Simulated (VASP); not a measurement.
# Pressure and energy of rock-salt ZrC from 6% compression to 6% expansion, optB86b-vdW

I calculate the pressure and the static energy of rock-salt ZrC at seven volumes, from about 6% below to about 6% above equilibrium. The question is how strongly the crystal resists an even change of volume, and whether it resists compression and expansion equally. ZrC serves as a hard coating and as a ceramic for very high temperatures, where its stiffness helps to set the stresses that build up against a substrate or a neighbouring phase. Volume changes are counted from the minimum of the Birch-Murnaghan fit, and energies per atom from the lowest point of the series, the cell at 12.94 Å³ per atom. Positive pressure means that the cell is compressed.

## Systems and settings

A cell from a diffraction database, relaxed at this level and then scaled evenly, fractional positions kept. VASP 6.6.1, plane waves with PAW, optB86b-vdW, cutoff 520 eV, k mesh 10×10×10, no spin polarisation, no spin-orbit coupling, static lattice. A Birch-Murnaghan fit to the energies has its minimum at 12.95 Å³ per atom.

Notes on method and selection:

- The pressure is that of a finite plane-wave basis, so it need not vanish exactly at the minimum of the energy.
- Only series whose fit has its minimum inside the range and an error under 0.5 meV per atom are shown.
- Where rows or columns differ in functional or spin-orbit coupling, non-spherical gradient terms in the PAW spheres (LASPH) may be on in some and off in others.
- Runs that did not converge, have known faults or may not be shown are not listed, and runs on Ansatz's PAW sets soft_1 and soft_2 are kept to separate tables.

Columns:

- volume change (%): volume relative to the fitted equilibrium volume.
- pressure (GPa): pressure from the stress tensor (positive: compressed).
- energy (meV/atom): energy per atom above the lowest point of the series.

Input lines of one member:

```
PREC = Accurate
ENCUT = 520
EDIFF = 1E-06
NELM = 100
ISMEAR = 0
SIGMA = 0.05
LREAL = .FALSE.
ALGO = Normal
GGA = MK
AGGAC = 0
LUSE_VDW = .TRUE.
PARAM1 = 0.1234
PARAM2 = 1
LASPH = .TRUE.
NBANDS = 14
```

Command (options for logging and memory left out): `mpirun -np 2 vasp_std`

## Table of results

| member | volume change (%) | pressure (GPa) | energy (meV/atom) |
| --- | --- | --- | --- |
| 12.17 Å³ | −6.03 | 16.07 | 37.4 |
| 12.43 Å³ | −4.03 | 10.17 | 16.1 |
| 12.69 Å³ | −2.03 | 4.82 | 4.0 |
| 12.94 Å³ | −0.03 | 0.00 | 0.0 |
| 13.20 Å³ | 1.97 | −4.36 | 3.5 |
| 13.46 Å³ | 3.97 | −8.30 | 13.7 |
| 13.72 Å³ | 5.97 | −11.85 | 29.9 |

pressure (GPa) against volume change (%):

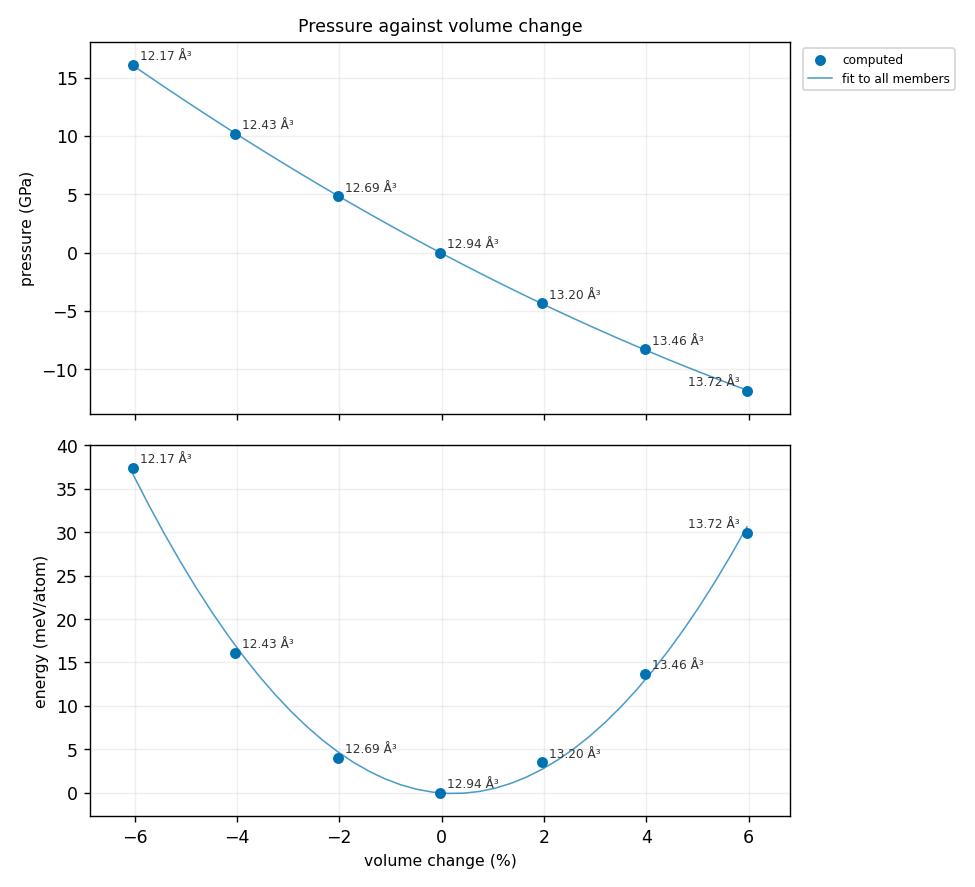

Least-squares fits to the whole series, with x = volume change (%); R² and errors in the fitted variable (y, or ln y where the fit is in ln y):

| y | members | fit | R² | rms residual | leave-one-out rms | the same for the mean of the others |
| --- | --- | --- | --- | --- | --- | --- |
| pressure (GPa) | 7 | y = −0.07286 − 2.316 x + 0.05869 x² | 1.00 | 0.042 | 0.11 | 11 |
| energy (meV/atom) | 7 | y = −0.02358 − 0.4404 x + 0.9345 x² | 1.00 | 0.71 | 1.9 | 15 |

## The trend and its physics

Pressure falls at every step as the cell grows, from 16.07 GPa in the smallest cell to −11.85 GPa in the largest. The energy rises on both sides of the 12.94 Å³ cell.

The slope of the pressure at equilibrium gives the bulk modulus, B = −V dP/dV. From the two cells on either side of the middle one I get (4.82 + 4.36) / (2.03 + 1.97) = 2.295 GPa per percent, so B is 100 × 2.295 = 230 GPa. This is a stiff solid: a volume change of 1% takes more than 2 GPa.

The stiffness itself depends on volume. Between the two smallest cells the pressure changes by 16.07 − 10.17 = 5.90 GPa, and between the two largest by 11.85 − 8.30 = 3.55 GPa, for the same 2% step. The ratio is 5.90 / 3.55 = 1.66. The energy carries the same asymmetry: 6.03% of compression costs 37.4 meV/atom, while 5.97% of expansion costs 29.9 meV/atom.

The reason lies in how the forces between neighbours vary with distance. In rock salt the Zr–C distance is the cube root of the volume per atom, so it runs only from 12.17^(1/3) = 2.30 Å to 13.72^(1/3) = 2.39 Å over the whole series. Shortening the bond raises the kinetic energy of the valence electrons and pushes filled shells into each other, and this repulsion grows steeply. The attraction from Zr–C bonding varies more gently with distance. Compression therefore meets a rising resistance, and expansion a falling one. That is the general theory of cohesion; the columns show its result, not the separate terms.

The rate of stiffening can be read from the end intervals. The slopes there are 5.90 / 2.00 = 2.95 and 3.55 / 2.00 = 1.775 GPa per percent. The middle volumes, in percent of the equilibrium volume, are 100 − (6.03 + 4.03) / 2 = 94.97 and 100 + (3.97 + 5.97) / 2 = 104.97. B is then 2.95 × 94.97 = 280 GPa at a mean pressure of (16.07 + 10.17) / 2 = 13.1 GPa, and 1.775 × 104.97 = 186 GPa at a mean tension of (8.30 + 11.85) / 2 = 10.1 GPa. The pressure derivative of B is then (280 − 186) / (13.1 + 10.1) = 4.1, an ordinary value for a dense solid.

## Exceptions

Largest departures from the fit to the whole series:

| member | pressure (GPa) | fit | computed − fit | in rms residuals |
| --- | --- | --- | --- | --- |
| 12.69 Å³ | 4.82 | 4.87 | −0.05 | 1.2 |
| 13.20 Å³ | −4.36 | −4.41 | +0.05 | 1.1 |
| 12.43 Å³ | 10.17 | 10.21 | −0.04 | 1.0 |
| 12.17 Å³ | 16.07 | 16.03 | +0.04 | 1.0 |

No cell stands apart from the others. The largest departures from the quadratic fit to the pressure are 0.05 GPa, at 12.69 Å³ and 13.20 Å³, on a range of nearly 28 GPa. Their signs follow a pattern: the fit is too low at 12.17 Å³, too high at 12.43 and 12.69 Å³, and too low again at 13.20 Å³. This is what a missing cubic term leaves behind, so I blame the form of the fit and not the cells.

The same omission matters more for the energy. The minimum of the fitted parabola lies at 0.4404 / (2 × 0.9345) = +0.24%, although the Birch-Murnaghan minimum is at zero by definition. I would not take an equilibrium volume from that parabola.

The 12.94 Å³ cell has a small oddity of its own. It is compressed by 0.03% and should show about 0.03 × 2.3 = 0.07 GPa, yet its pressure is 0.00 GPa. The likely cause is the finite plane-wave basis, which makes the computed pressure slightly too low, so that relaxation to zero stress stops at a volume slightly too small.

## Questions the table answers

**What pressure compresses ZrC by 3%?**

I put x = −3 into the quadratic fit: −0.07286 + 2.316 × 3 + 0.05869 × 9 = 7.40 GPa. A straight line between the neighbouring cells gives 4.82 + ((3 − 2.03) / 2.00) × (10.17 − 4.82) = 7.41 GPa. The answer is 7.4 GPa, with an uncertainty of about 0.1 GPa from the interpolation.

**If my cell volume is wrong by 0.5%, will I notice it in the energy or in the pressure?**

The pressure shifts by 0.5 × 2.295 = 1.1 GPa, which is easy to see. For the energy I average the two cells near 2%: (4.0 + 3.5) / 2 = 3.75 meV/atom. The energy grows as the square of the volume change, so 0.5% costs about 3.75 × (0.5 / 2)² = 0.23 meV/atom, which is easily missed. The pressure is the better check on the volume.

**Do the pressures and the energies tell the same story?**

The work of compression is the integral of the pressure over volume. The trapezoid rule from the 12.94 Å³ cell to the smallest one gives 0.00 / 2 + 4.82 + 10.17 + 16.07 / 2 = 23.025 GPa for the sum of the mean pressures. Each step is 0.02 × 12.95 = 0.259 Å³ per atom, and 1 GPa Å³ is 6.24 meV, so the work is 23.025 × 0.259 × 6.24 = 37.2 meV/atom. The energy column gives 37.4 meV/atom. The two agree, and the basis error in the stress is harmless at this scale.

## Conclusions and limits

Within 6% of equilibrium on either side, a bulk modulus of about 230 GPa and a pressure derivative of about 4 describe ZrC well at this level. A single constant slope does not: it understates the pressure needed for strong compression and overstates the tension in strong expansion.

The lattice is static. Zero-point and thermal vibrations would add a positive pressure at each volume, so the equilibrium volume would grow and the bulk modulus there would fall. The crystal is also perfectly stoichiometric, whereas real ZrC usually lacks some carbon, and such vacancies tend to soften it. Both effects would place a real sample below the calculated stiffness, apart from the error of the functional, which is not compared with experiment here. The scaling is even in all directions, so these numbers do not describe a film strained only in its plane.

[Logs are printed without paths, hosts, clocks, repeated set-up lines and the standing remarks that a program may print on its own settings, such as how far it seeks lower states.]
